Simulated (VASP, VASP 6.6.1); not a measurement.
# Band gaps of bulk 2H-MoTe₂ from LDA to HSE06: direct gap reproduced, indirect gap undecided

## Background

Two measurements on bulk 2H-MoTe₂ serve as reference. The direct gap comes from room-temperature photoreflectance on a commercial Bridgman-grown crystal ("Photoacoustic and modulated reflectance studies of indirect and direct band gap in van der Waals crystals", 2017, PubMed Central 5684221). It is the A transition at K, an excitonic line, and so lies somewhat below the gap between free-particle levels. The fundamental, indirect gap comes from scanning tunneling spectroscopy at 77 K on micrometre-thick flakes cleaved in ultrahigh vacuum ("Surface transport and band gap structure of exfoliated 2H-MoTe$_2$ crystals", 2014, arXiv:1407.1219). There the band onsets were extrapolated linearly in an averaged conductance curve, so the value describes the surface region and depends on how the onsets are drawn.

| compared with | measured | source's wording or label | T (K) | method |
| --- | --- | --- | --- | --- |
| smallest direct gap (eV) | 1.06 | direct gap at K (A transition) | room temperature | photoreflectance |
| fundamental gap (eV) | 0.96 ± 0.02 | smallest (indirect) quasiparticle gap from STS band onsets | 77 | scanning tunneling spectroscopy |

## Strategy

We look for the cheapest level of theory that gives both gaps of the bulk crystal within 0.15 eV. The model is the six-atom hexagonal cell with the lattice constants of a published structure refinement and the atoms relaxed by LDA, which keeps errors of the computed interlayer distance out of the gaps.

The target is chosen with the physics left out in mind. The calculations hold the nuclei static and contain no excitons; lattice vibrations and exciton binding together may put the measured direct transition roughly 0.1 eV below the computed quantity. A much narrower target would test these omissions more than the functional, while a much wider one would let through the usual gap error of a local functional. The two measured gaps differ by only 0.1 eV, so meeting the target does not by itself establish that the gap is indirect; we follow the kind of gap separately.

We begin with LDA at a modest cutoff and mesh, test these settings, and then add spin-orbit coupling and better functionals as the results require. Tellurium and molybdenum are heavy enough, and the splitting of the valence band at K large enough, that no level will be accepted without spin-orbit coupling.

System: Te2Mo; P6_3/mmc (No. 194), 6 atoms in the cell; conventional a = 3.518, c = 13.974 A, from a published structure refinement (COD).

On the selection of runs and values: Electron-phonon renormalisation and excitons are left out; optical values lie below the quasiparticle gap by the exciton binding energy. 4 further cited values are not listed: repeats, values quoted from earlier work, more than five for one quantity or six quantities, optical onsets of an indirect gap, modes that a denser mesh moves by over 3 %, or quantities that fewer than three runs give.

## 1. LDA at light settings

LDA without spin-orbit coupling is the least expensive starting point and gives the baseline for every later change. We expect an indirect gap that is too small by a few tenths of an eV. The K point does not belong to an 8×8 in-plane mesh, so the levels along the symmetry lines are needed for the direct gap.

**Run 1.** VASP 6.6.1: LDA; 350 eV, 8x8x2 k mesh; measured cell with atoms relaxed by LDA; levels on the mesh and along the symmetry lines, LASPH on.

Key lines of the input:
```
ALGO = Normal
EDIFF = 1E-06
ENCUT = 350
GGA = CA
ISMEAR = 0
LASPH = .TRUE.
NBANDS = 42
NELM = 100
PREC = Accurate
SIGMA = 0.03
KPOINTS: Gamma, 8 8 2
KPOINTS_OPT: line mode along the symmetry lines
PAW data sets: Te Mo_sv (LDA 64)
```

Command:
```
mpirun -np 8 vasp_std
```

Selected lines of the output:
```
   1 F= -.41227423E+02 E0= -.41227423E+02  d E =-.430472E-42
```

Converged; 21 s on 8 cores of Intel Xeon Platinum 8559C (Emerald Rapids), shared host.

| quantity | run 1 | measured | deviation |
| --- | --- | --- | --- |
| smallest direct gap (eV) | 1.020 | 1.06 | −0.040 |
| fundamental gap (eV) | 0.687 | 0.96 ± 0.02 | −0.273 |
| kind of gap | indirect |  |  |

The gap is indirect, and the fundamental gap is too small by 0.273 eV, the usual failing of LDA. The direct gap lies only 0.040 eV below the photoreflectance line, but this agreement cannot be taken at face value: spin-orbit coupling is still missing, and by splitting the valence band at K it should raise the upper branch and reduce the direct gap.

## 2. Cutoff and in-plane mesh

Before adding physics we test the two numerical settings separately, one run with a cutoff of 500 eV and one with a 10×10×2 mesh. Both are still inexpensive in LDA. We expect changes of at most a few hundredths of an eV, small beside the miss in the fundamental gap.

**Run 2.** VASP 6.6.1: LDA; 500 eV, 8x8x2 k mesh; measured cell with atoms relaxed by LDA; levels on the mesh and along the symmetry lines, LASPH on.

Key lines of the input, as changed from run 1:
```diff
- ENCUT = 350
+ ENCUT = 500
```

Selected lines of the output:
```
   1 F= -.41231580E+02 E0= -.41231580E+02  d E =-.897016E-42
```

Converged; 53 s on the same hardware.

**Run 3.** VASP 6.6.1: LDA; 350 eV, 10x10x2 k mesh; measured cell with atoms relaxed by LDA; levels on the mesh and along the symmetry lines, LASPH on.

Key lines of the input, as changed from run 1:
```diff
- KPOINTS: Gamma, 8 8 2
+ KPOINTS: Gamma, 10 10 2
```

Selected lines of the output:
```
   1 F= -.41228403E+02 E0= -.41228403E+02  d E =-.112104E-34
```

Converged; 33 s on the same hardware.

| quantity | run 2 | run 3 | measured |
| --- | --- | --- | --- |
| smallest direct gap (eV) | 1.021 | 1.021 | 1.06 |
| fundamental gap (eV) | 0.686 | 0.682 | 0.96 ± 0.02 |
| kind of gap | indirect | indirect |  |

Neither setting matters at the level of the target. The higher cutoff changes both gaps by 0.001 eV, and the denser in-plane mesh lowers the fundamental gap by 0.005 eV and leaves the direct gap practically unchanged. For LDA the lighter settings are good enough, and the miss in the fundamental gap is not caused by them.

## 3. Spin-orbit coupling in LDA

We now add spin-orbit coupling to LDA at the lighter settings. The upper valence branch at K should move up by roughly 0.1 eV, taking the direct gap down with it. The indirect gap should change less if its valence maximum lies at Γ, where the top band comes mainly from orbitals without angular momentum about the stacking axis (Mo d<sub>z²</sub> and Te p<sub>z</sub>), so that no comparable first-order shift is expected. This run also shows how much a better functional has to make up.

**Run 4.** VASP 6.6.1: LDA with spin-orbit coupling; 350 eV, 8x8x2 k mesh; measured cell with atoms relaxed by LDA; levels on the mesh and along the symmetry lines, LASPH on.

Key lines of the input, as changed from run 1:
```diff
+ GGA_COMPAT = .FALSE.
- NBANDS = 42
+ LMAXMIX = 4
+ LNONCOLLINEAR = .TRUE.
+ LSORBIT = .TRUE.
+ MAGMOM = 0 0 0 0 0 0 0 0 0 0 0 0 0 0 0 0 0 0
+ NBANDS = 64
```

Command:
```
mpirun -np 8 vasp_ncl
```

Selected lines of the output:
```
   1 F= -.41856459E+02 E0= -.41856459E+02  d E =-.209752E-29  mag=    -0.0000    -0.0000     0.0000
```

Converged; 2.1 min on the same hardware.

| quantity | run 4 | measured | deviation |
| --- | --- | --- | --- |
| smallest direct gap (eV) | 0.953 | 1.06 | −0.107 |
| fundamental gap (eV) | 0.674 | 0.96 ± 0.02 | −0.286 |
| kind of gap | indirect |  |  |

Spin-orbit coupling lowers the direct gap by 0.067 eV and the fundamental gap by only 0.013 eV. The small second change fits a valence maximum at Γ, though it doesn't prove that position. With the coupling included, LDA still meets the target for the direct gap, but the fundamental gap is now 0.286 eV too small, almost twice the tolerance. The functional is the likeliest source of the missing part, so we vary it next.

## 4. Three other functionals without spin-orbit coupling

PBE, r2SCAN and TB-mBJ are compared at the same cell and settings, first without spin-orbit coupling, so that each differs from the first LDA run only in the functional and the PAW data sets that go with it. All three avoid the cost of exact exchange. We expect little from PBE, a moderate opening from r2SCAN and a larger one from TB-mBJ, whose potential is built for band gaps. The functional needed here must open the indirect gap by more than the direct one, since LDA is much closer for the latter. Whichever looks suitable will be repeated with spin-orbit coupling before it is judged.

**Run 5.** VASP 6.6.1: PBE; 350 eV, 8x8x2 k mesh; measured cell with atoms relaxed by LDA; levels on the mesh and along the symmetry lines, LASPH on.

Key lines of the input, as changed from run 1:
```diff
- GGA = CA
+ GGA = PE
- PAW data sets: Te Mo_sv (LDA 64)
+ PAW data sets: Te Mo_sv (PBE 64)
```

Selected lines of the output:
```
   1 F= -.35957645E+02 E0= -.35957645E+02  d E =-.404786E-43
```

Converged; 23 s on the same hardware.

**Run 6.** VASP 6.6.1: r2SCAN; 350 eV, 8x8x2 k mesh; measured cell with atoms relaxed by LDA; levels on the mesh and along the symmetry lines, LASPH on.

Key lines of the input, as changed from run 5:
```diff
- GGA = PE
+ METAGGA = R2SCAN
```

Selected lines of the output:
```
   1 F= -.15557811E+03 E0= -.15557811E+03  d E =-.562899E-35
```

Converged; 69 s on the same hardware.

**Run 7.** VASP 6.6.1: TB-mBJ; 350 eV, 8x8x2 k mesh; measured cell with atoms relaxed by LDA; levels on the mesh and along the symmetry lines, LASPH on.

Key lines of the input, as changed from run 5:
```diff
- GGA = PE
+ METAGGA = MBJ
- NELM = 100
+ NELM = 150
```

Converged; 47 s on the same hardware.

| quantity | run 5 | run 6 | run 7 | measured |
| --- | --- | --- | --- | --- |
| smallest direct gap (eV) | 1.027 | 1.113 | 1.046 | 1.06 |
| fundamental gap (eV) | 0.720 | 0.832 | 0.835 | 0.96 ± 0.02 |
| kind of gap | indirect | indirect | indirect |  |

PBE opens the fundamental gap by only 0.033 eV over LDA and still misses it by 0.240 eV. r2SCAN and TB-mBJ bring it to 0.832 and 0.835 eV, inside the tolerance, and both open the indirect gap more than the direct one. TB-mBJ does so more selectively: it raises the direct gap by just 0.026 eV over LDA, r2SCAN by 0.093 eV. Our expectation that TB-mBJ would open the gaps more than r2SCAN is not borne out.

Neither functional can be accepted yet. Their fundamental gaps have little more than 0.02 eV to spare, and spin-orbit coupling is still absent.

## 5. Spin-orbit coupling with both candidates

We repeat r2SCAN and TB-mBJ with spin-orbit coupling, because their fundamental gaps are too close to each other to choose between them beforehand. If the coupling acts much as in LDA, both will stay just within the target for the indirect gap, and the direct gaps will fall by several hundredths of an eV. The margin is narrow enough that this has to be calculated.

**Run 8.** VASP 6.6.1: r2SCAN with spin-orbit coupling; 350 eV, 8x8x2 k mesh; measured cell with atoms relaxed by LDA; levels on the mesh and along the symmetry lines, LASPH on.

Key lines of the input, as changed from run 4:
```diff
- GGA = CA
+ METAGGA = R2SCAN
- PAW data sets: Te Mo_sv (LDA 64)
+ PAW data sets: Te Mo_sv (PBE 64)
```

Selected lines of the output:
```
   1 F= -.15614933E+03 E0= -.15614933E+03  d E =-.287247E-32  mag=     0.0000     0.0000    -0.0000
```

Converged; 9.4 min on the same hardware.

**Run 9.** VASP 6.6.1: TB-mBJ with spin-orbit coupling; 350 eV, 8x8x2 k mesh; measured cell with atoms relaxed by LDA; levels on the mesh and along the symmetry lines, LASPH on.

Key lines of the input, as changed from run 8:
```diff
- METAGGA = R2SCAN
+ METAGGA = MBJ
- NELM = 100
+ NELM = 150
```

Selected lines of the output:
```
   1 F= 0.16707605E+04 E0= 0.16707605E+04  d E =-.236056E-22  mag=     0.0000    -0.0000     0.0000
```

Converged; 5.7 min on the same hardware.

| quantity | run 8 | run 9 | measured |
| --- | --- | --- | --- |
| smallest direct gap (eV) | 1.044 | 0.969 | 1.06 |
| fundamental gap (eV) | 0.820 | 0.823 | 0.96 ± 0.02 |
| kind of gap | indirect | indirect |  |

With spin-orbit coupling both functionals fall within the target for both gaps. The direct gap is 0.016 eV too small in r2SCAN and about 0.09 eV too small in TB-mBJ; the fundamental gap is too small by 0.140 and 0.137 eV. The coupling lowers the fundamental gap by 0.012 eV in each case, close to the change in LDA.

The direct gap is met with room to spare, but the fundamental gap is not securely met. Its margin is about 0.01 eV, less than the 0.02 eV uncertainty of the tunneling value, so an equally good measurement at the upper end of that range would turn both results into misses. We therefore treat the indirect gap as undecided at this level.

## 6. A hybrid functional for the indirect gap

The thin margin justifies a step to HSE06, whose screened exact exchange should open the indirect gap further. To limit the cost we use a coarser 5×5×1 mesh and add the spin-orbit changes found in LDA. That transfer is reasonable for the fundamental gap, where three functionals gave nearly the same change. We expect the fundamental gap to come closer to experiment, with a risk that the direct gap becomes too large.

**Run 10.** VASP 6.6.1: HSE06; 350 eV, 5x5x1 k mesh; measured cell with atoms relaxed by LDA; levels on the mesh and along the symmetry lines, LASPH on.

Key lines of the input, as changed from run 5:
```diff
+ AEXX = 0.25
+ HFSCREEN = 0.2
- NBANDS = 42
+ LHFCALC = .TRUE.
+ NBANDS = 32
+ PRECFOCK = Fast
- KPOINTS: Gamma, 8 8 2
+ KPOINTS: Gamma, 5 5 1
```

Selected lines of the output:
```
   1 F= -.43725042E+02 E0= -.43725042E+02  d E =-.979977E-13
```

Converged; 11 min on the same hardware (all steps together).

**Run 11.** VASP 6.6.1: worked out from finished runs, with no new run: HSE06; 350 eV, 5x5x1 k mesh; measured cell with atoms relaxed by LDA; levels on the mesh and along the symmetry lines; the spin-orbit change of the LDA gaps added, LASPH on.

Command:
```
none
```

| quantity | run 10 | run 11 | measured |
| --- | --- | --- | --- |
| smallest direct gap (eV) | 1.455 | 1.387 | 1.06 |
| fundamental gap (eV) | 1.139 | 1.126 | 0.96 ± 0.02 |
| kind of gap | indirect | – |  |

HSE06 puts both gaps above the measured values. With the spin-orbit change from LDA added, the direct gap is 1.387 eV, 0.327 eV above the photoreflectance line and a clear miss. Exciton binding and lattice vibrations, at roughly 0.1 eV together, would explain only part of this excess. Nor does the transferred spin-orbit change account for it: LDA, r2SCAN and TB-mBJ agree on that change to about 0.01 eV.

The fundamental gap of 1.126 eV is 0.166 eV too large. That is just outside the target, and the 0.02 eV uncertainty of the tunneling value is enough to leave this gap undecided too, now from the other side. The hybrid therefore does not settle the indirect gap, and it loses the good direct gap of the cheaper functionals. The effect of its 5×5×1 mesh, with a single layer of points along the stacking axis, was not examined here, so part of the excess may come from the sampling.

## Results at a glance

| run | settings | smallest direct gap (eV) | deviation | fundamental gap (eV) | deviation | cost |
| --- | --- | --- | --- | --- | --- | --- |
| 1 | LDA, 350 eV, 8x8x2 k mesh | 1.020 | −0.040 | 0.687 | −0.273 | 2.8 core-min |
| 2 | LDA, 500 eV, 8x8x2 k mesh | 1.021 | −0.039 | 0.686 | −0.274 | 7.1 core-min |
| 3 | LDA, 350 eV, 10x10x2 k mesh | 1.021 | −0.039 | 0.682 | −0.278 | 4.4 core-min |
| 4 | LDA with spin-orbit coupling, 350 eV, 8x8x2 k mesh | 0.953 | −0.107 | 0.674 | −0.286 | 17 core-min |
| 5 | PBE, 350 eV, 8x8x2 k mesh | 1.027 | −0.033 | 0.720 | −0.240 | 3.1 core-min |
| 6 | r2SCAN, 350 eV, 8x8x2 k mesh | 1.113 | +0.053 | 0.832 | −0.128 | 9.2 core-min |
| 7 | TB-mBJ, 350 eV, 8x8x2 k mesh | 1.046 | −0.014 | 0.835 | −0.125 | 6.3 core-min |
| 8 | r2SCAN with spin-orbit coupling, 350 eV, 8x8x2 k mesh | 1.044 | −0.016 | 0.820 | −0.140 | 75 core-min |
| 9 | TB-mBJ with spin-orbit coupling, 350 eV, 8x8x2 k mesh | 0.969 | −0.092 | 0.823 | −0.137 | 45 core-min |
| 10 | HSE06, 350 eV, 5x5x1 k mesh | 1.455 | +0.395 | 1.139 | +0.179 | 90 core-min |
| 11 | worked out from finished runs, with no new run: HSE06, 350 eV, 5x5x1 k mesh, the spin-orbit change of the LDA gaps added | 1.387 | +0.327 | 1.126 | +0.166 | – |
|  | measured | 1.06 |  | 0.96 ± 0.02 |  |  |

The runs in order, against the measurement:

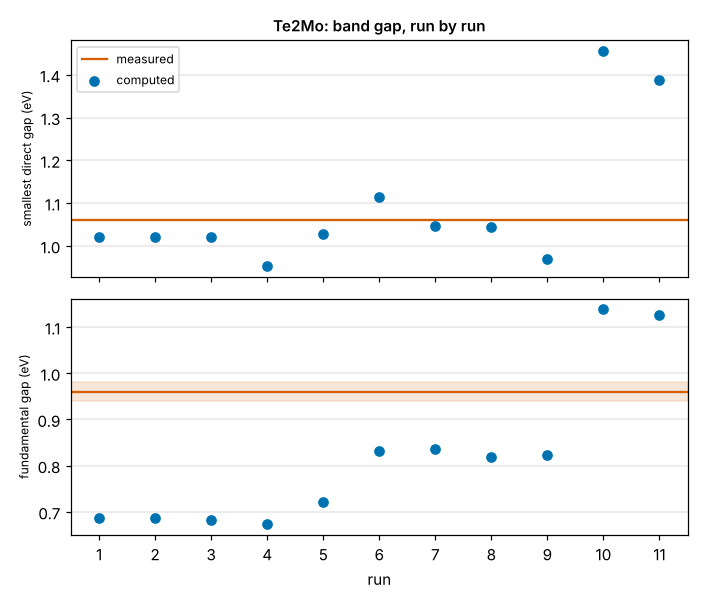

## How well does the simulation do?

r2SCAN and TB-mBJ, both with spin-orbit coupling, meet the 0.15 eV target for the direct gap; for the fundamental gap the outcome is undecided. Their direct gaps are 0.016 and 0.092 eV too small. Their fundamental gaps are low by 0.140 and 0.137 eV, inside the target by less than the 0.02 eV uncertainty of the tunneling value. Each calculation took roughly an hour of core time, and the difference in cost between them is not significant.

Going from LDA to r2SCAN or TB-mBJ opened the indirect gap more than the direct one, while spin-orbit coupling acted mainly on the direct gap. PBE brought little. HSE06 with the LDA spin-orbit change missed the direct gap by 0.327 eV and left the fundamental gap undecided from above.

The close direct gap of r2SCAN probably rests partly on a cancellation. The measured line is lowered by exciton binding and lattice vibrations, together perhaps 0.1 eV, so a correct static gap without excitons should lie above it. Both functionals therefore probably still underestimate the direct gap. Zero-point motion would also lower the measured fundamental gap, probably by some hundredths of an eV, which would make the true shortfall there slightly larger. The choice of band onsets in the tunneling curve could shift that reference either way.

Cutoff and in-plane mesh were tested only in LDA, so small numerical errors in r2SCAN or TB-mBJ could also matter at such a narrow margin. A GW calculation with spin-orbit coupling would be the natural next step.

[Logs are printed without paths, hosts, clocks, repeated set-up lines and the standing remarks that a program may print on its own settings, such as how far it seeks lower states.]

[The runs shown are a pick from a larger set of finished runs; failed, doubtful and other runs were left out of it ahead of writing. So were measured values far from every level or from commonly accepted values, and agreement can look better than it is. Lines of input and output are excerpts and may be shortened.]
